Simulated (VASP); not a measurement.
# Pressure and energy of LaNi2As2 (I4/mmm) under even scaling of the cell, PBEsol+U

A crystal squeezed in a pressure cell, or a film held by a substrate with a different lattice spacing, works at a volume other than its own. For layered nickel arsenides, a family that includes low-temperature superconductors, the link between applied pressure and volume is needed before any change in electronic properties can be assigned to a change in bond length. This report follows the pressure and the energy of LaNi2As2 as the whole cell is scaled at fixed shape, using PBEsol with U on the Ni d shell. Volume changes are measured from the minimum of the fitted energy curve, energies from the lowest row of the series, and positive pressure means a compressed cell.

## Method

A cell from the Materials Project database, relaxed at this level and then scaled evenly, fractional positions kept. VASP 6.6.1, plane waves with PAW, PBEsol with a Hubbard U of 4 eV on the Ni d shell, cutoff 400 eV, k mesh 8×8×8, collinear spin, no spin-orbit coupling, static lattice. A Birch-Murnaghan fit to the energies has its minimum at 16.37 Å³ per atom.

Notes on method and selection:

- The pressure is that of a finite plane-wave basis, so it need not vanish exactly at the minimum of the energy.
- Only series whose fit has its minimum inside the range and an error under 0.5 meV per atom are shown.
- Non-spherical gradient terms in the PAW spheres (LASPH) are on in all rows.
- Runs that did not converge, have known faults or may not be shown are not listed, and runs on Ansatz's PAW sets soft_1 and soft_2 are kept to separate tables.

Columns:

- volume change (%): volume relative to the fitted equilibrium volume.
- pressure (GPa): pressure from the stress tensor (positive: compressed).
- energy (meV/atom): energy per atom above the lowest point of the series.

## Data

```
member    volume change (%)  pressure (GPa)  energy (meV/atom)
15.33 Å³  −6.32              9.62            30.6
15.66 Å³  −4.33              ?               ?
15.99 Å³  −2.34              2.85            3.8
16.31 Å³  −0.34              0.01            0.0
16.64 Å³  1.65               −2.53           1.7
16.97 Å³  3.64               −4.80           8.3
17.29 Å³  5.64               −6.82           19.3
```

Cells marked ? are withheld until the estimate has been made.

Least-squares fits to the members shown, with x = volume change (%); R² and errors in the fitted variable (y, or ln y where the fit is in ln y):

```
y                  members  fit                                 R²    rms residual  leave-one-out rms  the same for the mean of the others
pressure (GPa)     6        y = −0.4537 − 1.344 x + 0.03908 x²  1.00  0.032         0.15               6.5
energy (meV/atom)  6        y = −0.1147 − 0.3969 x + 0.6982 x²  1.00  0.55          2.5                13
```

## Why the values move as they do

Pressure falls from row to row as the cell grows, and it falls ever more slowly. Between −6.32 % and −2.34 % the slope is (2.85 − 9.62) / 3.98 = −1.70 GPa per percent; between 3.64 % and 5.64 % it is (−6.82 + 4.80) / 2.00 = −1.01 GPa per percent. Near the minimum, the rows at −0.34 % and 1.65 % give a bulk modulus $B = -V\,dP/dV$ of about 100 × 2.54 / 1.99 = 128 GPa.

The energy shows the same asymmetry. It is 30.6 meV/atom at −6.32 % but 19.3 meV/atom at 5.64 %, a ratio of 1.59, where a parabola about the minimum would give (6.32 / 5.64)² = 1.26. The general reason is that the repulsion between overlapping ion cores and the kinetic energy of the confined electrons rise faster on shortening a bond than the bonding attraction does. The spin moments vanish throughout, so no magnetic collapse adds to the curvature.

The pressure does not vanish at the energy minimum. Interpolation between the two rows around it gives 0.01 − 0.34 × 2.54 / 1.99 = −0.42 GPa. The stress is evaluated with a fixed set of plane waves, which describes an expanded cell less well; this adds a spurious pull towards smaller volume. The energies confirm the offset through $P = -dE/dV$, with 1 meV/Å³ = 0.1602 GPa. From 3.64 % to 5.64 % they give −0.1602 × (19.3 − 8.3) / ((5.64 − 3.64) / 100 × 16.37) = −5.38 GPa, while the mean of the two tabulated pressures is (−4.80 − 6.82) / 2 = −5.81 GPa, lower by 0.43 GPa. The offset thus hardly changes with expansion and affects the slopes little.

The axial ratio and the fractional height of As were held fixed. Letting them relax would lower the energy away from equilibrium, so the stiffness found here is somewhat above that of a crystal free to adjust under hydrostatic pressure.

## An estimate before looking

Plain estimates from the members shown:

- 15.66 Å³, fit at x = −4.33: 6.10 GPa
- 15.66 Å³, straight-line interpolation between 15.33 Å³ and 15.99 Å³: w = (−4.33 − (−6.32)) / (−2.34 − (−6.32)) = 0.500, so 9.62 + 0.500 × (2.85 − 9.62) = 6.23 GPa

The straight line between the neighbours, 6.23 GPa, is too high because the pressure curve bends upward on compression. The fitted parabola, 6.10 GPa, allows for a constant bend, but the bend grows: from the expanded side inward, the successive changes of step between shown rows are 0.25, 0.27 and 0.30 GPa.

A cubic follows this growth. The rows are evenly spaced to within rounding, and for five such points a cubic requires $P_0 - 4P_1 + 6P_2 - 4P_3 + P_4 = 0$, counted from the smallest volume. With 15.66 Å³ as the second point,

(9.62 + 6 × 2.85 − 4 × 0.01 − 2.53) / 4 = 6.04 GPa.

The same formula can be tried on the row at 16.31 Å³, using the four other rows from 15.99 to 17.29 Å³: (2.85 − 6 × 2.53 + 4 × 4.80 − 6.82) / 4 = 0.01 GPa, which agrees with the table to its last digit. No further shift is called for, since the moments stay at zero and the basis-set offset varies smoothly.

Rounding of the four inputs alone contributes about 0.005 GPa. One successful trial fixes the scatter only loosely, and the number of plane waves changes in jumps from volume to volume, so we widen the error to 0.02 GPa.

**Committed estimate, 15.66 Å³: pressure = 6.04 ± 0.02 GPa.**

## Outcome

```
member    volume change (%)  pressure (GPa)  energy (meV/atom)
15.66 Å³  −4.33              6.03            13.7
```

```
member    estimate       pressure (GPa)  computed  estimate − computed  miss in error bars
15.66 Å³  committed      6.04            6.03      +0.01                0.5
15.66 Å³  fit            6.10            6.03      +0.07
15.66 Å³  interpolation  6.23            6.03      +0.20
```

pressure (GPa) against volume change (%):

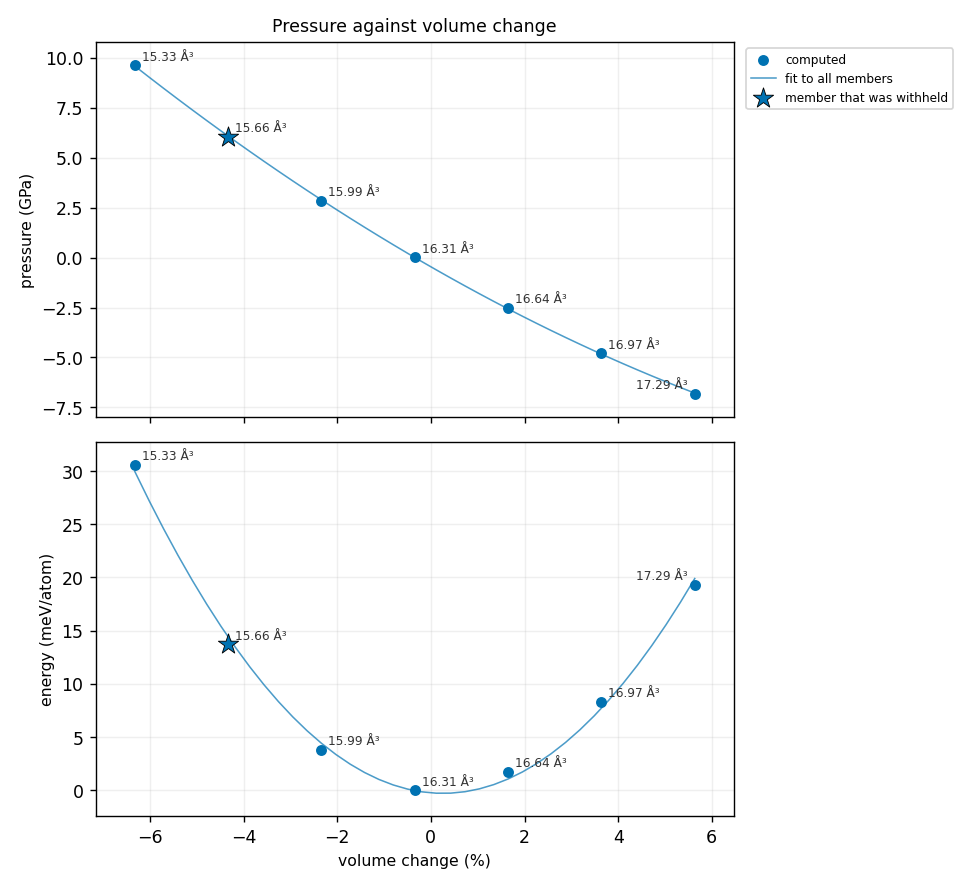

The estimate of 6.04 GPa lies 0.01 GPa above the computed 6.03 GPa, half an error bar away. It did better than the fitted parabola, which was 0.07 GPa too high, and the straight line, 0.20 GPa too high.

The argument that the bend grows on compression is borne out. From the expanded end inward, the successive changes of step are now 0.25, 0.27, 0.30, 0.34 and 0.41 GPa. A parabola holds this number constant and so misses the stiffening, while a cubic follows it closely enough here.

The new energy also tests the basis-set offset on the compressed side. Between 15.66 and 15.99 Å³ the energies give 0.1602 × (13.7 − 3.8) / ((4.33 − 2.34) / 100 × 16.37) = 4.87 GPa, against a mean tabulated pressure of (6.03 + 2.85) / 2 = 4.44 GPa. The difference of −0.43 GPa equals that found on expansion, so the offset acts as a nearly constant shift. The stiffening fits the picture of steeply rising short-range repulsion, though pressures alone do not identify which electrons supply it.

## Exceptions

Least-squares fits to the whole series, with x = volume change (%); R² and errors in the fitted variable (y, or ln y where the fit is in ln y):

```
y                  members  fit                                    R²    rms residual  leave-one-out rms  the same for the mean of the others
pressure (GPa)     7        y = −0.46263 − 1.3415 x + 0.039074 x²  1.00  0.037         0.098              6.4
energy (meV/atom)  7        y = −0.2443 − 0.3613 x + 0.6982 x²     1.00  0.60          1.6                12
```

Largest departures from the fit to the whole series:

```
member    pressure (GPa)  fit    computed − fit  in rms residuals
15.66 Å³  6.03            6.08   −0.05           1.3
15.33 Å³  9.62            9.58   +0.04           1.2
15.99 Å³  2.85            2.89   −0.04           1.1
16.64 Å³  −2.53           −2.57  +0.04           1.1
```

None of the seven rows stands out: the largest departure from the parabola is 0.05 GPa, in a series that spans more than 16 GPa. The departures change sign in a regular order along the series, as expected when a parabola is fitted to a curve whose bend grows on compression. They reflect the form of the fit and need no separate cause for any row.

## Conclusions

From −6.32 % to 5.64 % in volume, the pressure follows a smooth curve that steepens on compression. Within this range a cubic through four nearby rows of the even grid recovered two inner rows to about 0.01 GPa, whereas the fitted parabola missed the withheld row by 0.07 GPa.

For small compressions, the rows at −2.34 % and −0.34 % give 2.00 / (2.85 − 0.01) = 0.70 % of volume per GPa, or about 0.23 % in each lattice length at fixed shape. The basis-set offset largely cancels in this difference; for an absolute pressure, about 0.4 GPa should be added to the tabulated value.

The lattice is static here. At room temperature, vibrations with a classical energy 3kT of about 78 meV per atom and an assumed Grüneisen parameter of about 2 would add an outward pressure of roughly 0.1602 × 2 × 78 / 16.37 = 1.5 GPa at fixed volume, far more than the interpolation error.

[Logs are printed without paths, hosts, clocks, repeated set-up lines and the standing remarks that a program may print on its own settings, such as how far it seeks lower states.]
